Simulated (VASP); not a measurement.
# Work function of rock-salt TaC by face, termination and added layer, from PBEsol slabs

I calculate the work function of rock-salt TaC slabs with PBEsol: the vacuum level above the upper face less the Fermi level, so a larger number means that electrons are harder to remove. The question is how far this level moves with the face, with the element that ends the slab, with the number of layers, and with a layer of H, F or Cl on the Ta-ended (111) face. It matters for carbide electron emitters and for metal contacts, where the work function helps to set the emission current or the barrier to a semiconductor. How strongly the added atoms bind is a separate question, which is not treated here.

## Calculations

VASP 6.6.1 with its PAW datasets (PBE 64), a cutoff of 400 eV, PBEsol. The surface is rock-salt TaC at a = 4.45 Å; each state is built by hand and relaxed (threshold 0.04 eV/Å, under 0.08 where a run ended short) with a dipole correction, first-order Methfessel-Paxton smearing of 0.1 eV and meshes of 8 to 12 points along each in-plane vector; gases are relaxed alone in a box. The slabs are spin-paired, no spin-orbit coupling. The energy is the binding energy of an added atom against half its dimer, negative when downhill; energies are static. Aspherical gradient terms inside the PAW spheres (LASPH) are on.

Notes on method and selection:

- One start for each state; other arrangements may lie lower.
- Zero-point and thermal terms are left out; they favour steps that give off gas.
- Members whose relaxation ended with forces over 0.08 eV/Å, or whose line-up differs by over 0.25 eV between elements, are not listed.
- Runs in which the search for lower states was switched off are not listed.
- Runs that did not converge, have known faults or may not be shown are not listed, and runs on Ansatz's PAW sets soft_1 and soft_2 are kept to separate tables.

Columns:

- layers: number of layers.
- level (eV): vacuum level above the upper face less the Fermi level.

## Numbers

| member | layers | level (eV) |
| --- | --- | --- |
| TaC(111), Ta ends | 11 | 4.78 |
| TaC(001), 5 layers | 5 | 3.69 |
| TaC(110), 9 layers | 9 | 4.18 |
| TaC(001), 7 layers | 7 | 3.68 |
| TaC(111), Ta ends, one layer of F on top | – | 4.23 |
| TaC(111), C ends | 11 | 7.21 |
| TaC(111), Ta ends, one layer of H on top | – | 4.21 |
| TaC(111), Ta ends, one layer of Cl on top | – | ? |

Cells marked ? are withheld until the estimate has been made.

## Reading the trend

Termination moves the level most. On (111) it is 7.21 eV with C ends and 4.78 eV with Ta ends, a difference of 7.21 − 4.78 = 2.43 eV. Carbon draws electrons from tantalum, so an outer C layer puts negative charge outside positive charge, and this dipole raises the barrier for an electron that leaves.

Among the faces that hold both elements in each layer, (110) lies above (001) by 4.18 − 3.68 = 0.50 eV. Thickness hardly counts on (001), where going from 5 to 7 layers changes the level by 0.01 eV.

The ionic picture does not give the whole order. It would put the Ta-ended face below (001), yet that face lies 4.78 − 3.68 = 1.10 eV above it. A possible reason is that the outer Ta atoms, with carbon on one side only, keep more of their d electrons, and these spill towards the vacuum and raise the level.

The added layers lie on the upper face only, where the level is read. A layer of F lowers the level of the Ta-ended face by 4.78 − 4.23 = 0.55 eV, and H lowers it by 4.78 − 4.21 = 0.57 eV. Both atoms attract electrons from Ta, so simple charge transfer would have raised it. The lowering would follow if the added atoms sit low between the Ta atoms and draw in the electrons that had spilled further out.

The net dipole behind this is small. The shift in eV is 181 × p / A, where 181 V·Å is the elementary charge over the vacuum permittivity, p is the dipole change in e·Å per surface cell and A = √3 × 4.45² / 4 = 8.57 Å² is the cell area. For F this gives p = 0.55 × 8.57 / 181 = 0.026 e·Å in size, far less than a full electron moved by 1 Å. The shift may therefore be what remains of larger terms that nearly cancel, though a small charge transfer at low height would look the same. Each state had a single start, so another site for the added atoms could alter it.

## A prediction

Plain estimates from the members shown:

- TaC(111), Ta ends, one layer of Cl on top, mean of the 7 members shown: 4.57 eV, standard deviation 1.1

The mean of all seven members, 4.57 eV, includes the C-ended face, whose outer dipole has no counterpart under a Cl layer on Ta. I keep the three members that share the Ta-ended (111) face: (4.78 + 4.23 + 4.21) / 3 = 4.41 eV.

Chlorine resembles fluorine in valence, which argues for a level near 4.23 eV. It is also larger and should sit higher above the Ta layer, so that its negative charge acts over a longer distance and raises the level. Its greater polarizability works the other way. A change of only 0.01 e·Å in the dipole moves the level by 0.01 × 181 / 8.57 = 0.2 eV, and the columns give neither the height nor the charge of the Cl layer. I therefore add no shift to the mean of the three.

I tried the route by predicting each of these members from the other two. It misses F by (4.78 + 4.21) / 2 − 4.23 = 0.265 eV, H by (4.78 + 4.23) / 2 − 4.21 = 0.295 eV and the bare face by 4.78 − (4.23 + 4.21) / 2 = 0.56 eV, a root-mean-square miss of 0.40 eV, which I take as the error bar. Three members are a thin basis for it, but the seven-member mean has a scatter of 1.1 eV, most of it from the C-ended face.

**Committed estimate, TaC(111), Ta ends, one layer of Cl on top: level = 4.4 ± 0.4 eV.**

## Result

| member | level (eV) |
| --- | --- |
| TaC(111), Ta ends, one layer of Cl on top | 3.96 |

| member | estimate | level (eV) | computed | estimate − computed | miss in error bars |
| --- | --- | --- | --- | --- | --- |
| TaC(111), Ta ends, one layer of Cl on top | committed | 4.40 | 3.96 | +0.44 | 1.1 |
| TaC(111), Ta ends, one layer of Cl on top | mean | 4.57 | 3.96 | +0.61 |  |

level (eV) by member:

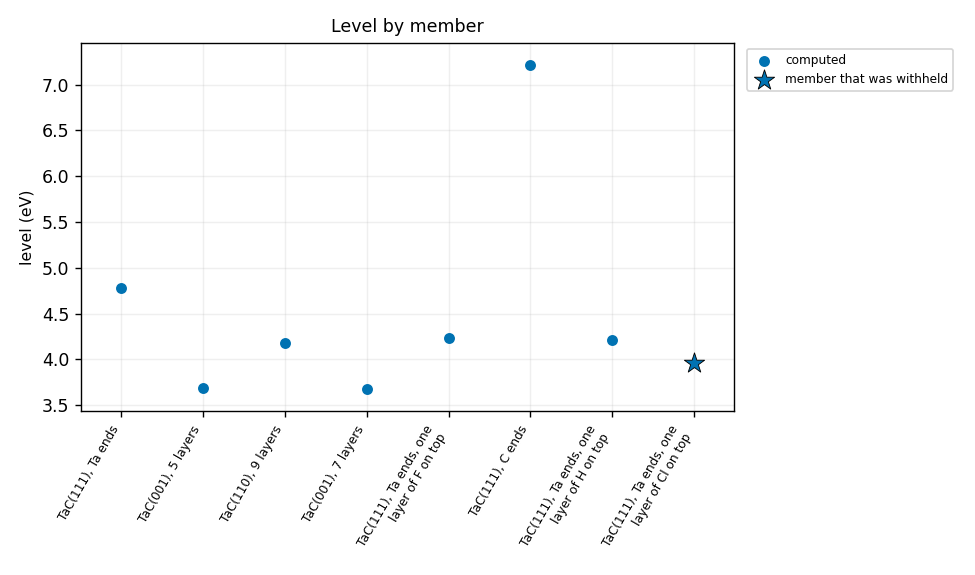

The computed level is 3.96 eV, so my estimate of 4.4 ± 0.4 eV was 0.44 eV too high and fell just outside its error bar. It still did better than the mean of the seven members, which was 0.61 eV too high.

Leaving out the C-ended face helped, but keeping the bare Ta-ended face was a mistake. H and F had both lowered the level, and their mean, (4.23 + 4.21) / 2 = 4.22 eV, would have missed by only 0.26 eV.

My argument that Cl, sitting higher, should raise the level above that of F has the wrong sign: Cl lies 4.23 − 3.96 = 0.27 eV below F. Against the bare face it lowers the level by 0.82 eV, a dipole change of 0.82 × 8.57 / 181 = 0.039 e·Å per surface cell, with the positive side outward. An electronegative atom can do this if its electron cloud is polarized towards the metal, which leaves the vacuum side short of electrons. Chlorine is more polarizable than fluorine, so the order fits, though a difference in site or height could also produce it.

## Exceptions

The C-ended (111) face stands far apart. The other seven members average (4.78 + 3.69 + 4.18 + 3.68 + 4.23 + 4.21 + 3.96) / 7 = 4.10 eV and span only 3.68 to 4.78 eV, so it lies 7.21 − 4.10 = 3.11 eV above their mean. It is also high against the work functions of most transition metals, roughly 4 to 6 eV.

The sign is that of a negative carbon layer outside positive tantalum. The size need not be that of a real surface, because the slab is hand-built with a complete outer layer of carbon and was relaxed from one start. Carbon atoms with broken bonds may prefer to pair up or to leave part of the layer empty. Either change could weaken the outward negative dipole and bring the level down.

The Cl-covered face is no outlier in the whole series: it lies 0.14 eV below the same mean of seven, and both (001) slabs lie lower still.

## What to take away

On the Ta-ended (111) face, a full layer of H, F or Cl lowers the level by 0.55 to 0.82 eV. Predicting each covered face from the mean of the other two gives a root-mean-square miss of 0.18 eV, so about 0.2 eV is a fair error for a similar added layer, on the thin basis of three cases. Electronegativity alone gives the wrong sign for the shift.

For a hot emitter, the difference between (110) and (001) matters. At 2000 K, kT is 0.0000862 × 2000 = 0.172 eV, and 0.50 eV changes the emission by exp(0.50 / 0.172) = 18 times in favour of (001), if the prefactors are equal and the levels stay as calculated.

Spin-orbit coupling is left out. It should shift these levels far less than the change of termination does, with a sign I cannot give in advance.
